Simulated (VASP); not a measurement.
# Pressure, band gap and energy of rocksalt PbS within about 6 % of its equilibrium volume, r2SCAN + rVV10

An infrared detector made of PbS has its cut-off wavelength set by the band gap, and any strain left by the substrate or the packaging moves that gap. I therefore need to know how strongly the gap responds to volume, and what pressure and energy go with a given change. Here the rocksalt cell is scaled evenly through seven volumes, which covers the uniform part of such a strain but not a change of shape. Volume changes are counted from the minimum of the Birch-Murnaghan fit, 26.28 Å³ per atom, and energies from the lowest row; positive pressure means compression. The gap is the smallest one on the 7×7×7 mesh, which misses the L point where the band edges of PbS lie, so I use that column for the direction of its changes and as a rough guide to their size, not for the gap itself.

## Computational details

A cell from a diffraction database, relaxed at this level and then scaled evenly, fractional positions kept. VASP 6.6.1, plane waves with PAW, r2SCAN + rVV10, cutoff 400 eV, k mesh 7×7×7, no spin polarisation, no spin-orbit coupling, static lattice. A Birch-Murnaghan fit to the energies has its minimum at 26.28 Å³ per atom.

Notes on method and selection:

- The pressure is that of a finite plane-wave basis, so it need not vanish exactly at the minimum of the energy.
- Only series whose fit has its minimum inside the range and an error under 0.5 meV per atom are shown.
- Where rows or columns differ in functional or spin-orbit coupling, non-spherical gradient terms in the PAW spheres (LASPH) may be on in some and off in others.
- Runs that did not converge, have known faults or may not be shown are not listed, and runs on Ansatz's PAW sets soft_1 and soft_2 are kept to separate tables.

Columns:

- volume change (%): volume relative to the fitted equilibrium volume.
- pressure (GPa): pressure from the stress tensor (positive: compressed).
- energy (meV/atom): energy per atom above the lowest point of the series.
- gap (eV): smallest gap on the k mesh.

Input lines of one member:

```
PREC = Accurate
ENCUT = 400
EDIFF = 1E-06
NELM = 100
ISMEAR = 0
SIGMA = 0.05
LREAL = .FALSE.
ALGO = Normal
METAGGA = R2SCAN
LUSE_VDW = .TRUE.
IVDW_NL = 2
BPARAM = 11.95
CPARAM = 0.0093
LASPH = .TRUE.
NBANDS = 16
```

Command (options for logging and memory left out): `mpirun -np 2 vasp_std`

## Data

| member | volume change (%) | pressure (GPa) | energy (meV/atom) | gap (eV) |
| --- | --- | --- | --- | --- |
| 24.67 Å³ | −6.12 | 4.25 | 20.57 | 0.999 |
| 25.20 Å³ | −4.12 | 2.69 | 8.98 | 1.037 |
| 25.72 Å³ | −2.12 | 1.28 | 2.27 | 1.077 |
| 26.25 Å³ | −0.12 | 0.01 | 0.00 | 1.117 |
| 26.77 Å³ | 1.87 | −1.14 | 1.65 | 1.156 |
| 27.30 Å³ | 3.87 | −2.17 | 6.88 | 1.193 |
| 27.82 Å³ | 5.87 | −3.10 | 15.35 | 1.229 |

pressure (GPa) against volume change (%):

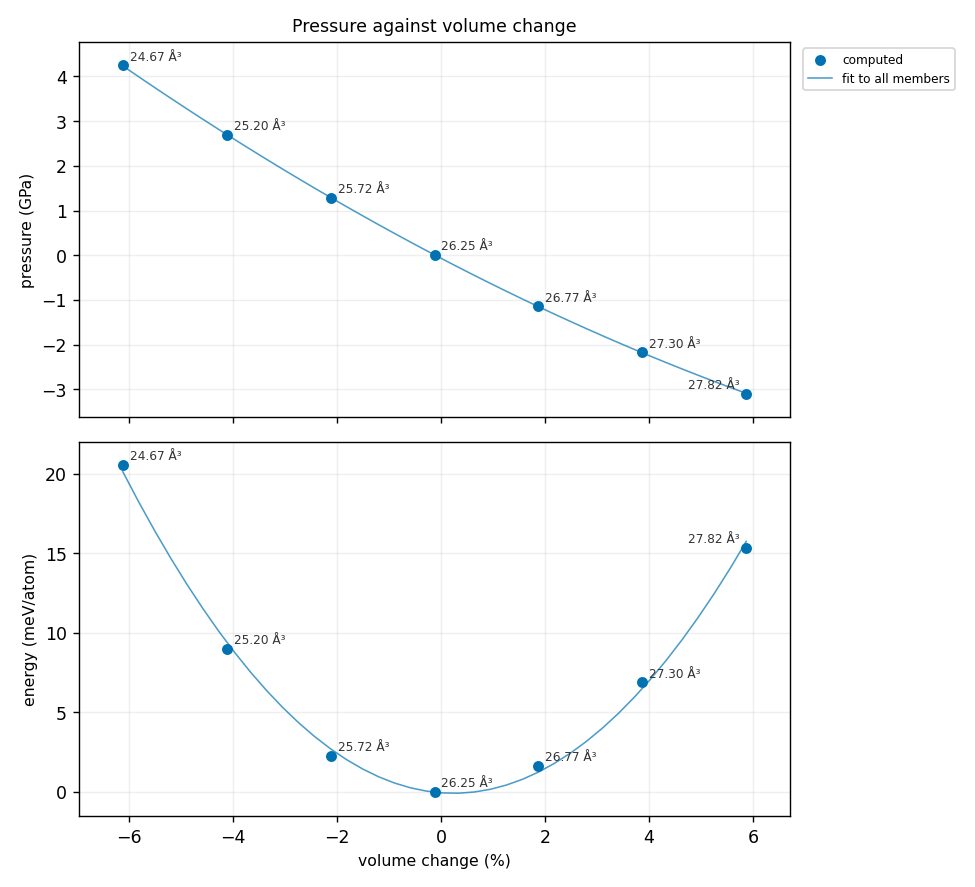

Least-squares fits to the whole series, with x = volume change (%); R² and errors in the fitted variable (y, or ln y where the fit is in ln y):

| y | members | fit | R² | rms residual | leave-one-out rms | the same for the mean of the others |
| --- | --- | --- | --- | --- | --- | --- |
| pressure (GPa) | 7 | y = −0.06686 − 0.6073 x + 0.01573 x² | 1.00 | 0.010 | 0.027 | 2.9 |
| energy (meV/atom) | 7 | y = −0.06688 − 0.2411 x + 0.5002 x² | 1.00 | 0.39 | 1.0 | 8.3 |

## Why the values move as they do

From the smallest cell to the largest, the pressure falls from 4.25 to −3.10 GPa and the gap rises from 0.999 to 1.229 eV, both without a reversal between rows. The energy rises on either side of the 26.25 Å³ row.

Around equilibrium the pressure changes by (1.28 + 1.14) / (2.12 + 1.87) = 0.607 GPa per % of volume, which is a bulk modulus of 0.607 × 100 = 60.7 GPa. The same number accounts for the energy. For a harmonic solid the energy is ½BV₀(ΔV/V₀)², and with 1 GPa Å³ = 6.24 meV a change of 1 % costs 0.5 × 60.7 × 26.28 × 6.24 × 0.0001 = 0.50 meV per atom, as in the quadratic term of the energy fit.

The crystal stiffens as it is squeezed. Between the two smallest cells the slope is (4.25 − 2.69) / 2.00 = 0.78 GPa per %, and between the two largest it is (3.10 − 2.17) / 2.00 = 0.47 GPa per %. Short-range repulsion between the ions grows steeply as the Pb–S distance shrinks, while the attraction varies more gently.

The gap opens by (1.156 − 1.077) / (1.87 + 2.12) = 0.020 eV per % near equilibrium, and its steps from row to row stay between 0.036 and 0.040 eV. Many tetrahedral semiconductors with a direct gap at Γ behave the other way and open their gap under pressure. In the lead chalcogenides the accepted reason lies in the valence edge, an antibonding mixture of Pb 6s and S 3p. Shorter bonds strengthen that mixing and push the valence edge up faster than the conduction edge, which is mainly Pb 6p, so compression narrows the gap.

## Residuals

Largest departures from the fit to the whole series:

| member | pressure (GPa) | fit | computed − fit | in rms residuals |
| --- | --- | --- | --- | --- |
| 25.20 Å³ | 2.69 | 2.70 | −0.01 | 1.2 |
| 27.30 Å³ | −2.17 | −2.18 | +0.01 | 1.1 |
| 25.72 Å³ | 1.28 | 1.29 | −0.01 | 1.1 |
| 24.67 Å³ | 4.25 | 4.24 | +0.01 | 1.1 |

In pressure no row stands apart: the largest departures from the quadratic fit are about 0.01 GPa, one unit in the last printed digit.

The energy parabola misses by more, and in a regular way. At 24.67 Å³ it lies roughly 0.4 meV per atom below the computed energy, and at 27.82 Å³ roughly 0.4 meV per atom above it. The compressed side is steeper than a parabola allows and the stretched side is flatter. This is the same stiffening that bends the pressure curve, and a cubic term would take it up.

The pressure also vanishes slightly away from the energy minimum. Its fit gives −0.067 GPa at zero volume change, equivalent to a shift of 0.067 / 0.607 = 0.11 % in volume. A finite plane-wave basis produces an offset of this kind.

The gap column is displaced as a whole. A denser mesh that includes L gives a much smaller gap for the relaxed cell. The slope is probably affected too. In a two-band picture the gap at a distance q from L is E = √(E_L² + c²q²), where E_L is the gap at L and c the coupling strength, so with the term cq held fixed a change in E_L reaches E reduced by the factor E_L/E. I therefore expect the true edge to respond more strongly to volume than these rows do.

## Worked examples

**How far does 1 GPa of hydrostatic pressure move the gap?**
I take the rows at 26.25 and 25.72 Å³. The gap changes by 1.077 − 1.117 = −0.040 eV while the pressure rises by 1.28 − 0.01 = 1.27 GPa. The result is −0.040 / 1.27 = −0.031 eV per GPa on this mesh. Between the two smallest cells it is only (0.999 − 1.037) / (4.25 − 2.69) = −0.024 eV per GPa, chiefly because the stiffer crystal gives up less volume for each GPa.

**Which cell should I build to represent PbS at 2 GPa?**
The target lies between the rows at 1.28 and 2.69 GPa, at a fraction (2.00 − 1.28) / (2.69 − 1.28) = 0.51 of the way. The volume change is then −2.12 − 0.51 × 2.00 = −3.14 %, and the volume is 26.28 × (100 − 3.14) / 100 = 25.45 Å³ per atom. The quadratic pressure fit returns 2.00 GPa at that point, so linear interpolation is good enough here.

**If my lattice constant is 1 % too long, how much does that alter the gap?**
Volume goes as the cube of length, so a length error of 1 % is a volume error of about 3 %. With the slope near equilibrium, the gap on this mesh comes out 3 × (1.156 − 1.077) / (1.87 + 2.12) = 0.059 eV too large, and the error at the true edge is probably larger. For a narrow-gap detector material that matters, so the lattice constant should be settled before gaps from different functionals are compared.

## Summary

Between −6.12 and +5.87 % in volume, compression of rocksalt PbS raises the pressure ever more steeply and narrows the gap on this mesh almost linearly. A series is shown only if its energy fit is good, so the smoothness of this one says little about other materials.

Spin-orbit coupling is off. It would split the Pb 6p states, lower the conduction edge and reduce the gap. The functional itself probably errs the other way, since semilocal functionals usually give gaps that are too small. The lattice is static; thermal motion would add a positive pressure at fixed volume and so expand the free crystal, which by the trend found here widens the gap.

Real PbS leaves the rocksalt structure at a few GPa, so the most compressed rows may describe a metastable crystal.

[Logs are printed without paths, hosts, clocks, repeated set-up lines and the standing remarks that a program may print on its own settings, such as how far it seeks lower states.]
